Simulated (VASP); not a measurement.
# Energy and pressure of CsCl-type ZnCu against k mesh in VASP (LDA, 0.05 eV smearing)

The usual rule of thumb is that each denser k mesh brings a metal closer to its converged result. We test it on ordered ZnCu, considered as a contact layer whose lattice fit and phase energy are to be computed for many strained cells.

Our brief sets three limits. The energy must lie within 5 meV/atom and the pressure within 0.2 GPa of the densest mesh, 14×14×14. The mesh may use at most 100 irreducible k points in the cubic cell, because strain lowers the symmetry and multiplies that number. Cell and atoms are fixed and only the mesh changes, so the errors are sampling errors within LDA and not distances from experiment. A positive pressure error means that the crystal pushes outwards more strongly than on the reference mesh.

## Set-up

Single-point runs at fixed cell and atoms; within a crystal every other setting is the same. Program: VASP 6.6.1, plane waves and PAW (data sets made for PBE of release 64), scalar-relativistic without spin-orbit coupling, no spin polarisation. Cutoff 400 eV; on the k meshes the divisions times the cell-vector length are 5 Å or more. Occupations: Fermi-Dirac smearing of 0.05 eV. The coarsest mesh (2×2×2) is coarse for metals and narrow gaps. Times are rough, from shared x86 server processors.

Notes on method and selection:

- The reference is the densest mesh run, which need not be fully converged.
- Without a gap the mesh has to resolve the Fermi surface, so errors need not fall smoothly.
- Runs that did not converge, have known faults or may not be shown are not listed, and runs on Ansatz's PAW sets soft_1 and soft_2 are kept to separate tables.

Columns:

- k-mesh length (Å): k-mesh length, the least over the axes of divisions times cell-vector length.
- k points: irreducible k points.
- energy error (meV/atom): energy per atom, extrapolated to zero smearing as the program prints it, minus that of the run on the densest mesh of the same crystal.
- pressure error (GPa): pressure minus that of the run on the densest mesh of the same crystal, compression positive.
- cost (core-s): processor time of the run, shared machines, rough.

## Data

| member | k-mesh length (Å) | k points | energy error (meV/atom) | pressure error (GPa) | cost (core-s) | remark |
| --- | --- | --- | --- | --- | --- | --- |
| k 2×2×2 | 5.9 | 4 | 91.43 | −4.288 | 1.8 |  |
| k 3×3×3 | 8.8 | 4 | 185.28 | 0.384 | 1.7 |  |
| k 4×4×4 | 11.8 | 10 | −20.33 | −0.928 | 2.5 |  |
| k 5×5×5 | 14.7 | 10 | −3.29 | 0.752 | 2.4 |  |
| k 7×7×7 | 20.6 | 20 | −6.60 | −0.098 | 3.5 |  |
| k 9×9×9 | 26.5 | 35 | 8.11 | 0.297 | 5.7 |  |
| k 11×11×11 | 32.4 | 56 | −0.64 | −0.097 | 8.7 |  |
| k 14×14×14 | 41.2 | 120 | 0.00 | 0.000 | 17 | known phase |

energy error (meV/atom) against k-mesh length (Å):

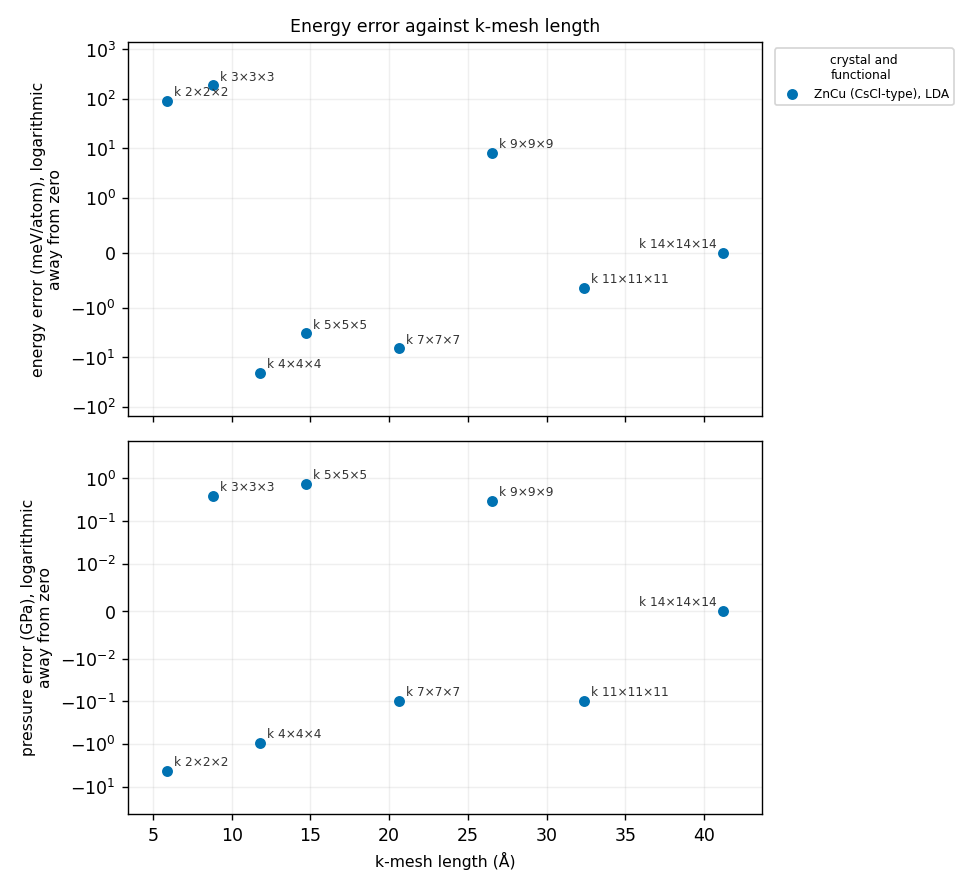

## Why the values move as they do

The errors shrink over the series as a whole, but not from each mesh to the next. The energy error grows in size at three of the six steps between 2×2×2 and 11×11×11, and the pressure error at two. From 3×3×3 to 9×9×9 the mesh length rises by a factor 26.5 / 8.8 = 3.0 and the energy error falls by 185.28 / 8.11 = 22.8. Between 5×5×5 and 9×9×9, however, it rises from 3.29 to 8.11 meV/atom in size. The pressure error changes sign at every step up to 11×11×11.

The cause to expect in a metal is the Fermi surface. The filled d bands are smooth functions of k and are summed accurately on modest meshes. The broad s-p bands cross the Fermi level, and there the occupation drops from full to empty within a narrow shell of k space. Whether a mesh point falls just inside or just outside that shell changes both the band energy and the Fermi level, which itself moves unevenly from mesh to mesh.

A free-electron estimate shows how narrow the shell is. The spacing of the densest mesh is $\Delta k = 2\pi/L$, or 2 × 3.14 / 41.2 = 0.15 Å⁻¹. The band energy changes over one spacing by $\Delta E \approx (\hbar^2/m)\,k_F\,\Delta k$. With $\hbar^2/m$ = 7.6 eV Å² and a rough $k_F$ of 1.5 Å⁻¹, from $k_F = (3\pi^2 n)^{1/3}$ with three s-p electrons per cell (one from Cu, two from Zn), this is 7.6 × 1.5 × 0.15 = 1.7 eV, some thirty times the smearing of 0.05 eV. Even this mesh therefore relies on errors cancelling around the Fermi surface, and the cancellation differs from mesh to mesh. A broader smearing, usually of Methfessel-Paxton type in metals, makes the convergence smoother.

## Members off the line

The 3×3×3 mesh has the largest energy error, 185.28 / 91.43 = 2.03 times that of the coarser 2×2×2 mesh, yet its pressure is off by only 0.384 GPa. The 5×5×5 mesh does the reverse: its energy is within 3.29 meV/atom, while its pressure misses by 0.752 GPa. These are sound runs on meshes too coarse for the Fermi surface, and a small error in one quantity says little about the other.

The 9×9×9 mesh is worse than 7×7×7 in both columns. It can be trusted as a warning: the −0.098 GPa reached at 7×7×7 did not mean that the pressure had settled.

## Price of accuracy

Between the two densest meshes each further k point costs about (17 − 8.7) / (120 − 56) = 0.13 core-s. The coarsest runs take 1.7 to 1.8 core-s for four points, most of it fixed overhead, so going below 5×5×5 saves almost nothing.

Moving from 7×7×7 to 11×11×11 costs 8.7 − 3.5 = 5.2 core-s. It cuts the energy error about tenfold and leaves the size of the pressure error unchanged.

In the cubic cell even the densest mesh is cheap. Under a general strain only the pairing of k with −k remains, and 11×11×11 needs (11 × 11 × 11 + 1) / 2 = 666 points. At the same cost per point that is roughly 90 core-s, and about twice as much for 14×14×14.

## Meeting the brief

The energy limit removes 2×2×2, 3×3×3, 4×4×4, 7×7×7 and 9×9×9. The pressure limit removes 5×5×5, and the limit on k points removes 14×14×14 with its 120. The pick is 11×11×11, with errors of −0.64 meV/atom and −0.097 GPa at 56 points. The runner-up is 7×7×7, which meets the pressure limit with 20 points but exceeds the energy limit by 6.60 − 5 = 1.60 meV/atom.

For phase energies, 1 meV/atom is roughly 0.096 kJ per mole of atoms. The pick is then off by 0.64 × 0.096 = 0.061 kJ/mol and the runner-up by 6.60 × 0.096 = 0.63 kJ/mol, both too low.

For lattice fit, a pressure error shifts the equilibrium cell length by $\delta a = a\,\Delta P/(3B)$. The table gives $a$ as 41.2 / 14 = 2.94 Å, and we take a rough bulk modulus $B$ of 120 GPa. The pick gives 2.94 × (−0.097) / (3 × 120) = −0.0008 Å, against 2.94 × 0.752 / (3 × 120) = +0.0061 Å for 5×5×5.

LDA itself makes such metals too short by roughly 2 to 3 %, here about 0.07 Å. For a fixed cell near the measured length, that agrees with the negative pressure found on every mesh: the fixed cell is stretched relative to the LDA equilibrium. This error is common to all rows and leaves the choice of mesh unchanged, but it rules out using the absolute LDA cell length for lattice fit.

The pick would fall if the converged pressure lay more than 0.2 − 0.097 = 0.103 GPa above the reference, or the converged energy more than 5 − 0.64 = 4.36 meV/atom above it. The pressure margin is thin, about the size of the last step in the series. A 15×15×15 run is the natural check, since by cubic symmetry a Γ-centred mesh of that size has the same 120 irreducible points as 14×14×14.

## Rules of thumb and their limits

From 7×7×7 upwards the listed errors stay within 8.11 meV/atom and 0.297 GPa for this crystal and smearing. Agreement between two neighbouring meshes is not a sufficient test. The energies at 5×5×5 and 7×7×7 differ by only 6.60 − 3.29 = 3.31 meV/atom, yet the next mesh moves by 8.11 + 6.60 = 14.71 meV/atom. The close match of the last two meshes deserves the same caution.

Lattice vibrations are left out. By the Grüneisen relation $P = \gamma E/V$, with a rough $\gamma$ of 2 and a vibrational energy $E$ near $3k_BT$ per atom, they would add roughly +2 GPa at room temperature and fixed cell, zero-point motion included, which is well above the pressure spread of 0.297 + 0.098 = 0.395 GPa among the meshes from 7×7×7 up.
